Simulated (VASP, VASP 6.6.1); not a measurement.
# Lattice constant of bcc niobium with LDA, PBEsol and PBE: PBE agrees within 0.5 %

## Reference data

The reference is the cubic lattice constant of unimplanted niobium, a = 3.301 Å, obtained by X-ray diffraction in "Mössbauer and X-ray Studies of Radiation-Induced Processes in Nb–Zr Alloys Implanted with 57Fe Ions" (2023, PubMed Central 10220652). The sample was a rolled foil annealed at 800 C and measured before implantation. No uncertainty and no temperature are given with the value; I take it as a room-temperature one. A JCPDS card is cited beside the niobium pattern, and it is my own thought that the number may echo that card to some degree. Niobium also takes up oxygen, nitrogen and hydrogen, which widen the lattice. The refined structure from which my calculations start has a = 3.300 Å, practically the same.

| compared with | measured | source's wording or label | method |
| --- | --- | --- | --- |
| lattice constant a of the conventional cell (Å) | 3.301 | cubic a of unimplanted Nb | X-ray diffraction |

Conditions are those given with the value in the passage it was taken from; "not stated" means there, and the paper may say more elsewhere.

## Method

I want the cheapest level of theory that gives the lattice constant of bcc niobium within 0.5 % of the measured value, which is a window of roughly 0.017 Å on either side. That is tight enough to expose the usual errors of simple density functionals, which often reach one per cent or more. It also leaves room for what the model omits: the nuclei are static at zero temperature, and thermal expansion together with zero-point motion should lengthen the measured lattice by roughly 0.1 to 0.2 %.

The model is the one-atom primitive cell, without spin polarisation, since niobium is a paramagnetic metal without magnetic order. Each relaxation starts from the diffraction cell stretched by 3 % in volume, so that the result has to be found and is not simply kept. I begin with the local density approximation, go on to gradient-corrected functionals, and turn to dearer forms only if these fail. Cutoff and k mesh are to be tested before a level is accepted.

System: Nb, space group Im-3m (Niobium); Im-3m (No. 229), 1 atom in the cell; conventional a = 3.300 A, from a published structure refinement (COD).

On the selection of runs and values: 1 further cited values are not listed: repeats, values quoted from earlier work, more than five for one quantity or six quantities, optical onsets of an indirect gap, modes that a denser mesh moves by over 3 %, or quantities that fewer than three runs give.

## 1. Local density approximation first

LDA is the simplest functional and sets the baseline. It usually binds metals too strongly, so I expect a lattice constant too short by one or two per cent. The mesh of 18×18×18 points is meant to sample the Fermi surface reasonably well, and with one atom in the cell it should still be cheap.

**Run 1.** VASP 6.6.1: LDA; 450 eV, 18x18x18 k mesh; cell and atoms relaxed, relaxed twice.

Key lines of the input:
```
ALGO = Normal
EDIFF = 1E-06
EDIFFG = -0.006
ENCUT = 450
GGA = CA
IBRION = 2
ISIF = 3
ISMEAR = 1
NBANDS = 12
NELM = 100
NSW = 50
PREC = Accurate
SIGMA = 0.15
KPOINTS: Gamma, 18 18 18
PAW data sets: Nb_sv (LDA 64)
```

Command:
```
mpirun -np 4 vasp_std
```

Selected lines of the output:
```
 reached required accuracy - stopping structural energy minimisation
  volume of cell :       17.08
    -1.622382712  1.622382712  1.622382712     0.000000000  0.308188688  0.308188688
```

Converged; 25 s on 4 cores of Intel Xeon 6975P-C (Granite Rapids), shared host (all steps together).

| quantity | run 1 | measured | deviation |
| --- | --- | --- | --- |
| lattice constant a of the conventional cell (Å) | 3.245 | 3.301 | −0.056 (−1.7 %) |
| volume of the conventional cell (Å³) | 34.16 |  |  |
| space group at the end | Im-3m |  |  |
| pressure left at the end (GPa) | 0.00419 |  |  |

LDA gives 3.245 Å, 1.7 % short and well outside the window. The error has the sign and size I expected from overbinding. Thermal expansion and zero-point motion would lengthen the computed lattice a little, but by far too little to close a gap of 0.056 Å.

## 2. Adding the density gradient with PBE

The next step is a gradient correction, which adds little to the cost of a cell this small. I take PBE, the general-purpose form, and keep cutoff and mesh as they were. It weakens the binding relative to LDA, so the lattice should widen; for a transition metal of the 4d series I expect a value close to the measured one, perhaps slightly above it.

**Run 2.** VASP 6.6.1: PBE; 450 eV, 18x18x18 k mesh; cell and atoms relaxed.

Key lines of the input, as changed from run 1:
```diff
- GGA = CA
+ GGA = PE
- PAW data sets: Nb_sv (LDA 64)
+ PAW data sets: Nb_sv (PBE 64)
```

Selected lines of the output:
```
 reached required accuracy - stopping structural energy minimisation
  volume of cell :       18.09
    -1.653580196  1.653580196  1.653580196     0.000000000  0.302374207  0.302374207
```

Converged; 12 s, same machine.

| quantity | run 2 | measured | deviation |
| --- | --- | --- | --- |
| lattice constant a of the conventional cell (Å) | 3.307 | 3.301 | +0.006 (+0.2 %) |
| volume of the conventional cell (Å³) | 36.17 |  |  |
| space group at the end | Im-3m |  |  |
| pressure left at the end (GPa) | 0.02006 |  |  |

PBE gives 3.307 Å, 0.2 % above the measured value and inside the window. The static lattice is already slightly too long, so thermal and zero-point expansion would add to the deviation; an allowance of the rough size assumed in the plan still leaves it within 0.5 %. The gradient correction has lengthened the lattice by 0.062 Å compared with LDA, at no noticeable cost.

## 3. PBEsol, with cutoff and mesh tested

Before settling on PBE I want to know how much the lattice constant depends on the plane-wave cutoff and the k mesh. I make this test with PBEsol, which costs about the same and also shows whether a gradient correction designed for solids comes closer. One run keeps the present settings, one raises the cutoff to 600 eV, and one refines the mesh to 26×26×26. I expect PBEsol to fall between LDA and PBE, and both refinements to move the lattice by far less than the window. Strictly, the test will hold for PBEsol; for PBE it is an indication, as the two functionals have the same form and differ only moderately.

**Run 3.** VASP 6.6.1: PBEsol; 450 eV, 18x18x18 k mesh; cell and atoms relaxed, relaxed twice.

Key lines of the input, as changed from run 2:
```diff
- GGA = PE
+ GGA = PS
```

Selected lines of the output:
```
 reached required accuracy - stopping structural energy minimisation
    -1.634285984  1.634285984  1.634285984     0.000000000  0.305944005  0.305944005
```

Converged; 20 s, same machine (all steps together).

**Run 4.** VASP 6.6.1: PBEsol; 600 eV, 18x18x18 k mesh; cell and atoms relaxed, relaxed twice.

Key lines of the input, as changed from run 3:
```diff
- ENCUT = 450
+ ENCUT = 600
```

Selected lines of the output:
```
    -1.635447314  1.635447314  1.635447314     0.000000000  0.305726755  0.305726755
```

Converged; 20 s, same machine (all steps together).

**Run 5.** VASP 6.6.1: PBEsol; 450 eV, 26x26x26 k mesh; cell and atoms relaxed, relaxed twice.

Key lines of the input, as changed from run 3:
```diff
- KPOINTS: Gamma, 18 18 18
+ KPOINTS: Gamma, 26 26 26
```

Selected lines of the output:
```
    -1.634152847  1.634152847  1.634152847     0.000000000  0.305968931  0.305968931
```

Converged; 48 s, same machine (all steps together).

| quantity | run 3 | run 4 | run 5 | measured |
| --- | --- | --- | --- | --- |
| lattice constant a of the conventional cell (Å) | 3.269 | 3.271 | 3.268 | 3.301 |
| volume of the conventional cell (Å³) | 34.92 | 34.99 | 34.91 |  |
| space group at the end | Im-3m | Im-3m | Im-3m |  |
| pressure left at the end (GPa) | 0.00509 | −0.03446 | 0.00495 |  |

PBEsol gives 3.269 Å, between LDA and PBE as I expected, but it is 1.0 % short and misses the window. Allowing for thermal and zero-point expansion would not bring it in.

The settings are not to blame. Raising the cutoff lengthens the lattice by 0.002 Å, and the finer mesh changes it by no more than 0.001 Å. Both shifts are small beside the PBEsol miss of 0.032 Å, and also beside the 0.010 Å or so that separates the PBE result from the upper edge of the window.

For PBE these tests remain indirect. That run was also relaxed only once, so its plane-wave basis still belonged to the stretched starting cell; I did not repeat it from the relaxed cell. The cell shrank by less than one per cent in length on the way, and I expect the effect to be small. PBE meets the target at the price of the simplest functionals, which leaves no reason to go on to dearer ones, and I end the series here.

## Comparison with experiment

| run | settings | lattice constant a of the conventional cell (Å) | deviation | cost |
| --- | --- | --- | --- | --- |
| 1 | LDA, 450 eV, 18x18x18 k mesh, relaxed twice | 3.245 | −0.056 (−1.7 %) | 99 core-s |
| 2 | PBE, 450 eV, 18x18x18 k mesh | 3.307 | +0.006 (+0.2 %) | under 1 core-min |
| 3 | PBEsol, 450 eV, 18x18x18 k mesh, relaxed twice | 3.269 | −0.032 (−1.0 %) | 80 core-s |
| 4 | PBEsol, 600 eV, 18x18x18 k mesh, relaxed twice | 3.271 | −0.030 (−0.9 %) | 81 core-s |
| 5 | PBEsol, 450 eV, 26x26x26 k mesh, relaxed twice | 3.268 | −0.033 (−1.0 %) | 3.2 core-min |
|  | measured | 3.301 |  |  |

The runs in order, against the measurement:

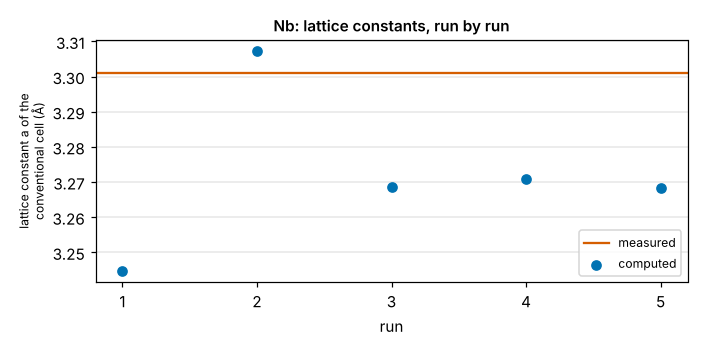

## Discussion

PBE meets the target. It gives a = 3.307 Å for bcc niobium against the measured 3.301 Å, a deviation of +0.2 % where 0.5 % was allowed, for less than one core-minute. LDA is 1.7 % short and PBEsol 1.0 % short. The three cost about the same, so the choice between them rests on accuracy alone.

Part of the close agreement is a cancellation. The calculation leaves out thermal expansion and zero-point motion, which would lengthen the lattice by roughly 0.1 to 0.2 %. With them PBE would lie some 0.3 to 0.4 % too high, still inside the window but with less room. This fits the usual tendency of PBE to bind slightly too weakly. The same allowance would reduce the LDA and PBEsol errors without bringing either within the target.

The measured value has its own uncertainty. Dissolved oxygen, nitrogen or hydrogen would have widened the lattice of the foil, so a purer sample could only move the reference further below PBE. How much of these the foil contained I cannot tell.

The step from LDA to PBE decided the outcome. The PBEsol runs brought no better functional, but they showed that a higher cutoff and a finer mesh move the lattice constant by 0.002 Å at most. I did not repeat these tests with PBE, nor relax its cell a second time. The non-spherical gradient terms inside the PAW spheres were left out, and their effect was not examined here.

[Logs are printed without paths, hosts, clocks, repeated set-up lines and the standing remarks that a program may print on its own settings, such as how far it seeks lower states.]

[The runs shown are a pick from a larger set of finished runs; failed, doubtful and other runs were left out of it ahead of writing. So were measured values far from every level or from commonly accepted values, and agreement can look better than it is. Lines of input and output are excerpts and may be shortened.]
